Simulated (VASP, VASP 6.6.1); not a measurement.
# Blind prediction of the zone-centre T2g phonon of CeO₂ with DFT+U

## Starting point

The quantity to be predicted is the wavenumber of the Raman-active T2g mode of CeO₂ in the fluorite structure. It was measured by Raman spectroscopy with 647 nm excitation at room temperature, on bulk CeO₂ that served as a reference sample. Raman scattering with visible light probes phonons very close to the zone centre, so the observed line can be compared directly with a calculated zone-centre frequency. I work blind: the measured wavenumber stays closed until I have committed to an estimate, and it is given with its source at the end. The structure is known from a published refinement (COD), with a = 5.411 Å for the conventional cell; I use that value to judge the calculated cells along the way.

## Choices

The aim is the cheapest level of theory that gives the T2g wavenumber within 3 %. That is close enough to show whether a functional describes the Ce–O force constants well, and it is about as strict as a harmonic calculation on a static lattice deserves: warming to room temperature and zero-point motion typically lower such a mode by roughly 1 %, and semilocal functionals often err by a few per cent.

The model is the primitive cell with three atoms. In the T2g mode the two oxygen atoms move against each other while cerium, on an inversion centre, stays at rest. The mode is even under inversion, so it carries no dipole and has no LO–TO splitting; finite displacements in the primitive cell are sufficient. All levels carry a U of 6 eV on cerium. In formally Ce⁴⁺ the 4f shell is empty, and U acts mainly through the f character mixed into the Ce–O bonds.

The frequency should depend strongly on the lattice constant, since a longer Ce–O bond is a softer one. I therefore read each frequency together with its cell. I start with LDA+U, check cutoff, k mesh and the effect of the cell there, and then climb to gradient-corrected functionals and, if the results call for it, to a meta-GGA. With the measured wavenumber closed, the choice of level has to rest on convergence, on the calculated cell and on how far the functionals agree.

System: CeO2, space group Fm-3m (Cerianite); Fm-3m (No. 225), 3 atoms in the cell; conventional a = 5.411 A, from a published structure refinement (COD).

On the selection of runs and values: 2 further cited values are not listed: repeats, values quoted from earlier work, more than five for one quantity or six quantities, optical onsets of an indirect gap, modes that a denser mesh moves by over 3 %, or quantities that fewer than three runs give.

## 1. LDA+U at its own cell

LDA+U is the simplest theory to begin with, and its relaxed cell is the base for the convergence tests. LDA usually binds too strongly, so I expect a lattice constant somewhat below 5.411 Å and a T2g mode on the stiff side. The run starts from parallel moments on cerium; for an empty 4f shell these should vanish during the self-consistency cycle.

**Run 1.** VASP 6.6.1: LDA+U (Ce 6 eV), parallel starting moments; 520 eV, 10x10x10 k mesh; cell relaxed with this functional; finite displacements, LASPH on.

Key lines of the input:
```
ALGO = Normal
AMIX = 0.2
AMIX_MAG = 0.8
BMIX = 1E-04
BMIX_MAG = 1E-04
EDIFF = 1E-08
ENCUT = 520
GGA = CA
IBRION = 6
ISIF = 2
ISMEAR = 0
ISPIN = 2
LASPH = .TRUE.
LDAU = .TRUE.
LDAUJ = 0 0
LDAUL = 3 -1
LDAUTYPE = 2
LDAUU = 6 0
LMAXMIX = 6
MAGMOM = 1 0 0
NBANDS = 20
NELM = 150
NFREE = 2
NSW = 1
POTIM = 0.015
PREC = Accurate
SIGMA = 0.03
KPOINTS: Gamma, 10 10 10
PAW data sets: Ce O (LDA 64)
```

Command:
```
mpirun -np 4 vasp_std
```

Selected lines of the output:
```
   5 F= -.26498171E+02 E0= -.26498171E+02  d E =-.679554E-22  mag=     0.0000
   1 f  =   13.818822 THz    86.826220 2PiTHz  460.946290 cm-1    57.150031 meV
   2 f  =   13.818822 THz    86.826220 2PiTHz  460.946290 cm-1    57.150031 meV
   3 f  =   13.818822 THz    86.826220 2PiTHz  460.946290 cm-1    57.150031 meV
   4 f  =    9.290581 THz    58.374444 2PiTHz  309.900436 cm-1    38.422740 meV
   5 f  =    9.290581 THz    58.374444 2PiTHz  309.900436 cm-1    38.422740 meV
   6 f  =    9.290581 THz    58.374444 2PiTHz  309.900436 cm-1    38.422740 meV
   7 f/i=    0.003428 THz     0.021538 2PiTHz    0.114342 cm-1     0.014177 meV
   8 f/i=    0.003428 THz     0.021538 2PiTHz    0.114342 cm-1     0.014177 meV
   9 f/i=    0.003428 THz     0.021538 2PiTHz    0.114342 cm-1     0.014177 meV
```

Converged; 11 min on 4 cores of AMD EPYC 7R43 64, shared host.

| quantity | run 1 |
| --- | --- |
| zone-centre T2g mode (cm⁻¹) | 460.9 |
| lattice constant a of the conventional cell (Å) | 5.416 |
| count of imaginary optical modes | 0 |

The lattice constant comes out at 5.416 Å, slightly above the 5.411 Å of the refinement, where I had expected a cell that was too small. The usual overbinding of LDA is not visible here; the U on the cerium 4f states probably offsets it, since it weakens the f admixture in the Ce–O bonds, but a run without U would be needed to show that.

The T2g mode is the upper triplet, at 460.9 cm⁻¹. The lower triplet, near 310 cm⁻¹, is the polar mode without its LO–TO splitting, and the last three are the translations, whose tiny imaginary value is numerical noise. The moment has vanished, as it should for an empty 4f shell.

## 2. Cutoff and k mesh at fixed cell

Before comparing functionals I want to know how much of this number depends on the settings. I keep the relaxed LDA+U cell and compute the phonons three times: with the settings unchanged as a baseline, with the cutoff lowered to 400 eV, and with a 14×14×14 mesh. For an insulator with a wide gap I expect the mesh to matter very little. The lower cutoff may shift the mode by a few cm⁻¹; if it does not, it would be a cheaper setting for phonons at a given cell.

**Run 2.** VASP 6.6.1: LDA+U (Ce 6 eV), parallel starting moments; 520 eV, 10x10x10 k mesh; the cell of the main LDA run; finite displacements, LASPH on.

Key lines of the input:
```
ALGO = Normal
AMIX = 0.2
AMIX_MAG = 0.8
BMIX = 1E-04
BMIX_MAG = 1E-04
EDIFF = 1E-08
ENCUT = 520
GGA = CA
IBRION = 6
ISIF = 2
ISMEAR = 0
ISPIN = 2
LASPH = .TRUE.
LDAU = .TRUE.
LDAUJ = 0 0
LDAUL = 3 -1
LDAUTYPE = 2
LDAUU = 6 0
LMAXMIX = 6
MAGMOM = 1 0 0
NBANDS = 20
NELM = 150
NFREE = 2
NSW = 1
POTIM = 0.015
PREC = Accurate
SIGMA = 0.03
KPOINTS: Gamma, 10 10 10
PAW data sets: Ce O (LDA 64)
```

Selected lines of the output:
```
   5 F= -.26498171E+02 E0= -.26498171E+02  d E =-.679554E-22  mag=     0.0000
   1 f  =   13.818822 THz    86.826220 2PiTHz  460.946290 cm-1    57.150031 meV
   2 f  =   13.818822 THz    86.826220 2PiTHz  460.946290 cm-1    57.150031 meV
   3 f  =   13.818822 THz    86.826220 2PiTHz  460.946290 cm-1    57.150031 meV
   4 f  =    9.290581 THz    58.374444 2PiTHz  309.900436 cm-1    38.422740 meV
   5 f  =    9.290581 THz    58.374444 2PiTHz  309.900436 cm-1    38.422740 meV
   6 f  =    9.290581 THz    58.374444 2PiTHz  309.900436 cm-1    38.422740 meV
   7 f/i=    0.003428 THz     0.021538 2PiTHz    0.114342 cm-1     0.014177 meV
   8 f/i=    0.003428 THz     0.021538 2PiTHz    0.114342 cm-1     0.014177 meV
   9 f/i=    0.003428 THz     0.021538 2PiTHz    0.114342 cm-1     0.014177 meV
```

Converged; 5 min, same machine (without the earlier runs it builds on).

**Run 3.** VASP 6.6.1: LDA+U (Ce 6 eV), parallel starting moments; 400 eV, 10x10x10 k mesh; the cell of the main LDA run; finite displacements, LASPH on.

Key lines of the input, as changed from run 1:
```diff
- ENCUT = 520
+ ENCUT = 400
```

Selected lines of the output:
```
   1 f  =   13.941111 THz    87.594585 2PiTHz  465.025413 cm-1    57.655777 meV
```

Converged; 6.4 min, same machine (without the earlier runs it builds on).

**Run 4.** VASP 6.6.1: LDA+U (Ce 6 eV), parallel starting moments; 520 eV, 14x14x14 k mesh; the cell of the main LDA run; finite displacements, LASPH on.

Key lines of the input, as changed from run 1:
```diff
- KPOINTS: Gamma, 10 10 10
+ KPOINTS: Gamma, 14 14 14
```

Selected lines of the output:
```
   1 f  =   13.821373 THz    86.842250 2PiTHz  461.031388 cm-1    57.160581 meV
```

Converged; 15 min, same machine (without the earlier runs it builds on).

| quantity | run 2 | run 3 | run 4 |
| --- | --- | --- | --- |
| zone-centre T2g mode (cm⁻¹) | 460.9 | 465.0 | 461.0 |
| lattice constant a of the conventional cell (Å) | 5.416 | 5.416 | 5.416 |
| count of imaginary optical modes | 0 | 0 | 0 |

The mesh is settled for this level: going from 10×10×10 to 14×14×14 moves the T2g mode by 0.1 cm⁻¹. The repeat with unchanged settings reproduces the first result, so the other two runs can be compared with it directly.

The cutoff matters more. At 400 eV the mode lies 4.1 cm⁻¹ higher, a shift of 0.9 %, which would use up almost a third of the 3 % target. The lower cutoff brought no clear saving in time either, so I stay at 520 eV. This test shows that 400 eV is too coarse for my purpose; it does not measure the error that remains at 520 eV.

## 3. LDA+U at the refined cell

The next question is how strongly the mode depends on the cell. I keep LDA+U and set the lattice constant to the refined 5.411 Å, 0.005 Å below the relaxed value. The slightly shorter bonds should raise the frequency by a couple of cm⁻¹. The result will help to separate the effect of the cell from that of the functional when I move to gradient corrections.

**Run 5.** VASP 6.6.1: LDA+U (Ce 6 eV), parallel starting moments; 520 eV, 10x10x10 k mesh; measured cell, atoms relaxed; finite displacements, LASPH on.

Key lines of the input, as changed from run 3:
```diff
- ENCUT = 400
+ ENCUT = 520
```

Selected lines of the output:
```
   5 F= -.26497731E+02 E0= -.26497731E+02  d E =-.989448E-22  mag=    -0.0000
   1 f  =   13.875708 THz    87.183646 2PiTHz  462.843808 cm-1    57.385293 meV
   2 f  =   13.875708 THz    87.183646 2PiTHz  462.843808 cm-1    57.385293 meV
   3 f  =   13.875708 THz    87.183646 2PiTHz  462.843808 cm-1    57.385293 meV
   4 f  =    9.355792 THz    58.784178 2PiTHz  312.075644 cm-1    38.692431 meV
   5 f  =    9.355792 THz    58.784178 2PiTHz  312.075644 cm-1    38.692431 meV
   6 f  =    9.355792 THz    58.784178 2PiTHz  312.075644 cm-1    38.692431 meV
   7 f/i=    0.003241 THz     0.020365 2PiTHz    0.108116 cm-1     0.013405 meV
   8 f/i=    0.003241 THz     0.020365 2PiTHz    0.108116 cm-1     0.013405 meV
   9 f/i=    0.003241 THz     0.020365 2PiTHz    0.108116 cm-1     0.013405 meV
```

Converged; 10 min, same machine.

| quantity | run 5 |
| --- | --- |
| zone-centre T2g mode (cm⁻¹) | 462.8 |
| lattice constant a of the conventional cell (Å) | 5.411 |
| count of imaginary optical modes | 0 |

Shortening the lattice constant by 0.005 Å raises the T2g mode by 1.9 cm⁻¹, or 0.4 %. The direction and size are as I had estimated. For LDA+U the choice between the relaxed and the refined cell is therefore minor, but the mode is sensitive enough that a functional with a cell too long by a few hundredths of an ångström could lose several per cent in frequency.

## 4. PBEsol+U

All results so far share one functional, and their agreement says nothing about its error. PBEsol adds a gradient correction made for the equilibrium properties of solids, at little extra cost per step. With the same U on cerium I expect a cell slightly longer than that of LDA+U and a somewhat softer T2g mode. If the two functionals stay within the 3 % of the target, that supports the LDA+U value, though it cannot prove it.

**Run 6.** VASP 6.6.1: PBEsol+U (Ce 6 eV), parallel starting moments; 520 eV, 10x10x10 k mesh; cell relaxed with this functional; finite displacements, relaxed twice, LASPH on.

Key lines of the input, as changed from run 1:
```diff
- GGA = CA
+ GGA = PS
- PAW data sets: Ce O (LDA 64)
+ PAW data sets: Ce O (PBE 64)
```

Selected lines of the output:
```
   1 f  =   13.571344 THz    85.271267 2PiTHz  452.691296 cm-1    56.126542 meV
   4 f  =    8.826220 THz    55.456776 2PiTHz  294.411009 cm-1    36.502296 meV
   5 f  =    8.826220 THz    55.456776 2PiTHz  294.411009 cm-1    36.502296 meV
   6 f  =    8.826220 THz    55.456776 2PiTHz  294.411009 cm-1    36.502296 meV
```

Converged; 14 min, same machine.

| quantity | run 6 |
| --- | --- |
| zone-centre T2g mode (cm⁻¹) | 452.7 |
| lattice constant a of the conventional cell (Å) | 5.448 |
| count of imaginary optical modes | 0 |

PBEsol+U gives a T2g mode at 452.7 cm⁻¹, 1.8 % below LDA+U, so the two functionals agree within the width of my target. The order is the one I expected, but the cell is longer than I had thought: 5.448 Å, or 0.7 % above the refined value. Thermal expansion cannot excuse this, since a static lattice should be slightly smaller than a measured one. The longer bonds are a likely reason for the softer mode, although the functional also changes the force constants at a given cell. By the criterion of the cell, LDA+U remains the better of the two.

## 5. PBE+U

PBE costs about the same per step as PBEsol and usually gives longer bonds. I run it with the same U to see how far the frequency falls when the cell grows further. I expect a lattice constant clearly above 5.448 Å and a mode below 452.7 cm⁻¹, probably by more than the gap between LDA+U and PBEsol+U. Such a result would carry little weight in my estimate, but it would show how much the choice among common functionals matters here.

**Run 7.** VASP 6.6.1: PBE+U (Ce 6 eV), parallel starting moments; 520 eV, 10x10x10 k mesh; cell relaxed with this functional; finite displacements, relaxed twice, LASPH on.

Key lines of the input, as changed from run 6:
```diff
- GGA = PS
+ GGA = PE
```

Selected lines of the output:
```
   1 f  =   13.086614 THz    82.225624 2PiTHz  436.522471 cm-1    54.121864 meV
```

Converged; 14 min, same machine.

| quantity | run 7 |
| --- | --- |
| zone-centre T2g mode (cm⁻¹) | 436.5 |
| lattice constant a of the conventional cell (Å) | 5.508 |
| count of imaginary optical modes | 0 |

PBE+U continues the trend: the lattice constant grows to 5.508 Å, 1.8 % above the refined value, and the T2g mode drops to 436.5 cm⁻¹. The step down from PBEsol+U is 16.2 cm⁻¹, about twice the step from LDA+U to PBEsol+U. Across the three functionals the mode now spans 24.4 cm⁻¹, more than 5 % of its value, so the choice of functional outweighs the tested changes of cutoff and mesh. With a cell this much too long, I give the PBE+U frequency little weight.

## 6. r²SCAN+U

The three functionals order themselves by cell length, and only LDA+U comes close to the refined lattice constant. That could be a cancellation between the overbinding of LDA and the effect of U, in which case its frequency need not be equally good. A meta-GGA is an independent test of this, at a higher cost per step. I keep U at 6 eV so that only the functional changes. I expect r²SCAN+U to give a cell clearly shorter than that of PBE+U, and a T2g mode above the PBE+U value, perhaps near that of LDA+U.

**Run 8.** VASP 6.6.1: r2SCAN+U (Ce 6 eV), parallel starting moments; 520 eV, 10x10x10 k mesh; cell relaxed with this functional; finite displacements, relaxed twice, LASPH on.

Key lines of the input, as changed from run 6:
```diff
- GGA = PS
+ METAGGA = R2SCAN
```

Selected lines of the output:
```
   1 f  =   13.670224 THz    85.892553 2PiTHz  455.989605 cm-1    56.535480 meV
   4 f  =    8.569641 THz    53.844640 2PiTHz  285.852441 cm-1    35.441170 meV
   5 f  =    8.569641 THz    53.844640 2PiTHz  285.852441 cm-1    35.441170 meV
   6 f  =    8.569641 THz    53.844640 2PiTHz  285.852441 cm-1    35.441170 meV
```

Converged; 31 min, same machine.

| quantity | run 8 |
| --- | --- |
| zone-centre T2g mode (cm⁻¹) | 456.0 |
| lattice constant a of the conventional cell (Å) | 5.481 |
| count of imaginary optical modes | 0 |

r²SCAN+U puts the T2g mode at 456.0 cm⁻¹, about 1 % below LDA+U and 0.7 % above PBEsol+U. The frequency is near that of LDA+U, as I had thought possible, but the cell is not: at 5.481 Å it is 1.3 % longer than the refined one and only 0.027 Å shorter than that of PBE+U.

This breaks the simple ordering by cell length. r²SCAN+U has a longer cell than PBEsol+U and yet a stiffer T2g mode, while its polar mode, at 285.9 cm⁻¹, is softer than the 294.4 cm⁻¹ of PBEsol+U. The functional therefore acts on the force constants in its own right, and a good lattice constant alone does not vouch for a good frequency. The result supports the LDA+U frequency to within about 1 %, but since the two levels reach similar values at cells 0.065 Å apart, a cancellation of errors in either of them remains possible.

## Prediction

For the T2g mode of CeO₂ at room temperature I commit to **455 ± 15 cm⁻¹**.

The estimate rests on LDA+U at its relaxed cell, 460.9 cm⁻¹. I favour this level because its lattice constant is closest to the refined one and its mesh has been checked. From this value I take off about 1 % for warming and zero-point motion; the size of that correction is a guess, not a calculation. The computed value to be judged against the target remains 460.9 cm⁻¹.

PBEsol+U and r²SCAN+U lie within 2 % of LDA+U, while PBE+U, with its much too long cell, lies about 5 % below. Together with the few per cent by which such functionals usually err, this leads me to an error bar of roughly 3.3 %, slightly wider than the 3 % target. The estimate alone therefore cannot assure that LDA+U meets it.

## Measured values

Source: "Size Dependence of Lattice Parameter and Electronic Structure in CeO 2 Nanoparticles" (2020, arXiv:2010.07939).

| compared with | measured | T (K) | method |
| --- | --- | --- | --- |
| zone-centre T2g mode (cm⁻¹) | 464 | room temperature | Raman spectroscopy, 647 nm excitation |

Conditions are those given with the value in the passage it was taken from; "not stated" means there, and the paper may say more elsewhere. The values are a selection: others may have been left out beforehand as unlike or outlying.

## Table of results

| run | settings | zone-centre T2g mode (cm⁻¹) | deviation | cost |
| --- | --- | --- | --- | --- |
| 1 | LDA+U (Ce 6 eV), 520 eV, 10x10x10 k mesh, cell relaxed with this functional | 460.9 | −3.1 (−0.7 %) | 45 core-min |
| 2 | LDA+U (Ce 6 eV), 520 eV, 10x10x10 k mesh, the cell of the main LDA run | 460.9 | −3.1 (−0.7 %) | 20 core-min |
| 3 | LDA+U (Ce 6 eV), 400 eV, 10x10x10 k mesh, the cell of the main LDA run | 465.0 | +1.0 (+0.2 %) | 26 core-min |
| 4 | LDA+U (Ce 6 eV), 520 eV, 14x14x14 k mesh, the cell of the main LDA run | 461.0 | −3.0 (−0.6 %) | 58 core-min |
| 5 | LDA+U (Ce 6 eV), 520 eV, 10x10x10 k mesh, measured cell, atoms relaxed | 462.8 | −1.2 (−0.2 %) | 41 core-min |
| 6 | PBEsol+U (Ce 6 eV), 520 eV, 10x10x10 k mesh, cell relaxed with this functional, relaxed twice | 452.7 | −11.3 (−2.4 %) | 56 core-min |
| 7 | PBE+U (Ce 6 eV), 520 eV, 10x10x10 k mesh, cell relaxed with this functional, relaxed twice | 436.5 | −27.5 (−5.9 %) | 57 core-min |
| 8 | r2SCAN+U (Ce 6 eV), 520 eV, 10x10x10 k mesh, cell relaxed with this functional, relaxed twice | 456.0 | −8.0 (−1.7 %) | 2.1 core-h |
|  | measured | 464 |  |  |

The runs in order, against the measurement:

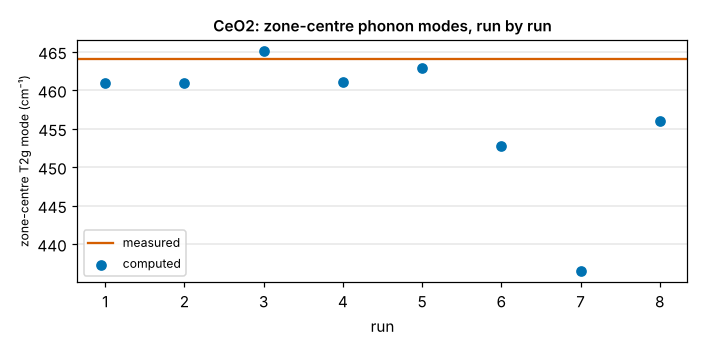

Further runs on the same system, made beside this series (convergence steps with loose settings among them):

| further | settings | zone-centre T2g mode (cm⁻¹) | deviation | cost |
| --- | --- | --- | --- | --- |
| F1 | PBEsol + D3(BJ)+U (Ce 6 eV), 520 eV, 10x10x10 k mesh, cell relaxed with this functional | 463.4 | −0.6 (−0.1 %) | 22 core-min |
| F2 | LDA+U (Ce 6 eV), 520 eV, 6x6x6 k mesh, the cell of the main LDA run | 460.7 | −3.3 (−0.7 %) | 9.9 core-min |
|  | measured | 464 |  |  |

## Judgement

LDA+U meets the 3 % target. At its own relaxed cell it gives 460.9 cm⁻¹ for the T2g mode, 0.7 % below the measured 464 cm⁻¹ ("Size Dependence of Lattice Parameter and Electronic Structure in CeO 2 Nanoparticles", 2020, arXiv:2010.07939), for 45 core-minutes. My estimate of 455 ± 15 cm⁻¹ also covers the measurement, but its correction for warming and zero-point motion moved it away from the measured value. With that guessed 1 %, LDA+U is nearly 2 % too soft and still inside the target.

PBEsol+U and r²SCAN+U pass as computed, but the same correction would take PBEsol+U outside and r²SCAN+U to about the limit. PBE+U misses by 5.9 %, in line with its overlong cell. Adding D3 to PBEsol+U raises the mode to 463.4 cm⁻¹, perhaps by shortening the bonds.

The cutoff test mattered most among the settings: 400 eV lands closer to experiment only by chance, through a basis error of about 4 cm⁻¹. A 6×6×6 mesh would have sufficed, and repeating the phonons with unchanged settings added nothing.

The good LDA+U cell may owe something to a cancellation between overbinding and U. The small excess in its length accounts for more than half of the miss as computed: the refined lattice constant raises the mode by 1.9 cm⁻¹ and leaves it 1.2 cm⁻¹ below the measured line. Oxygen vacancies in the sample would lower the measured line, so they cannot explain why the calculation is too soft. The basis error left at 520 eV and the influence of the chosen U are not shown in this report.

[Logs are printed without paths, hosts, clocks, repeated set-up lines and the standing remarks that a program may print on its own settings, such as how far it seeks lower states.]

[The runs shown are a pick from a larger set of finished runs; failed, doubtful and other runs were left out of it ahead of writing. So were measured values far from every level or from commonly accepted values, and agreement can look better than it is. Lines of input and output are excerpts and may be shortened.]
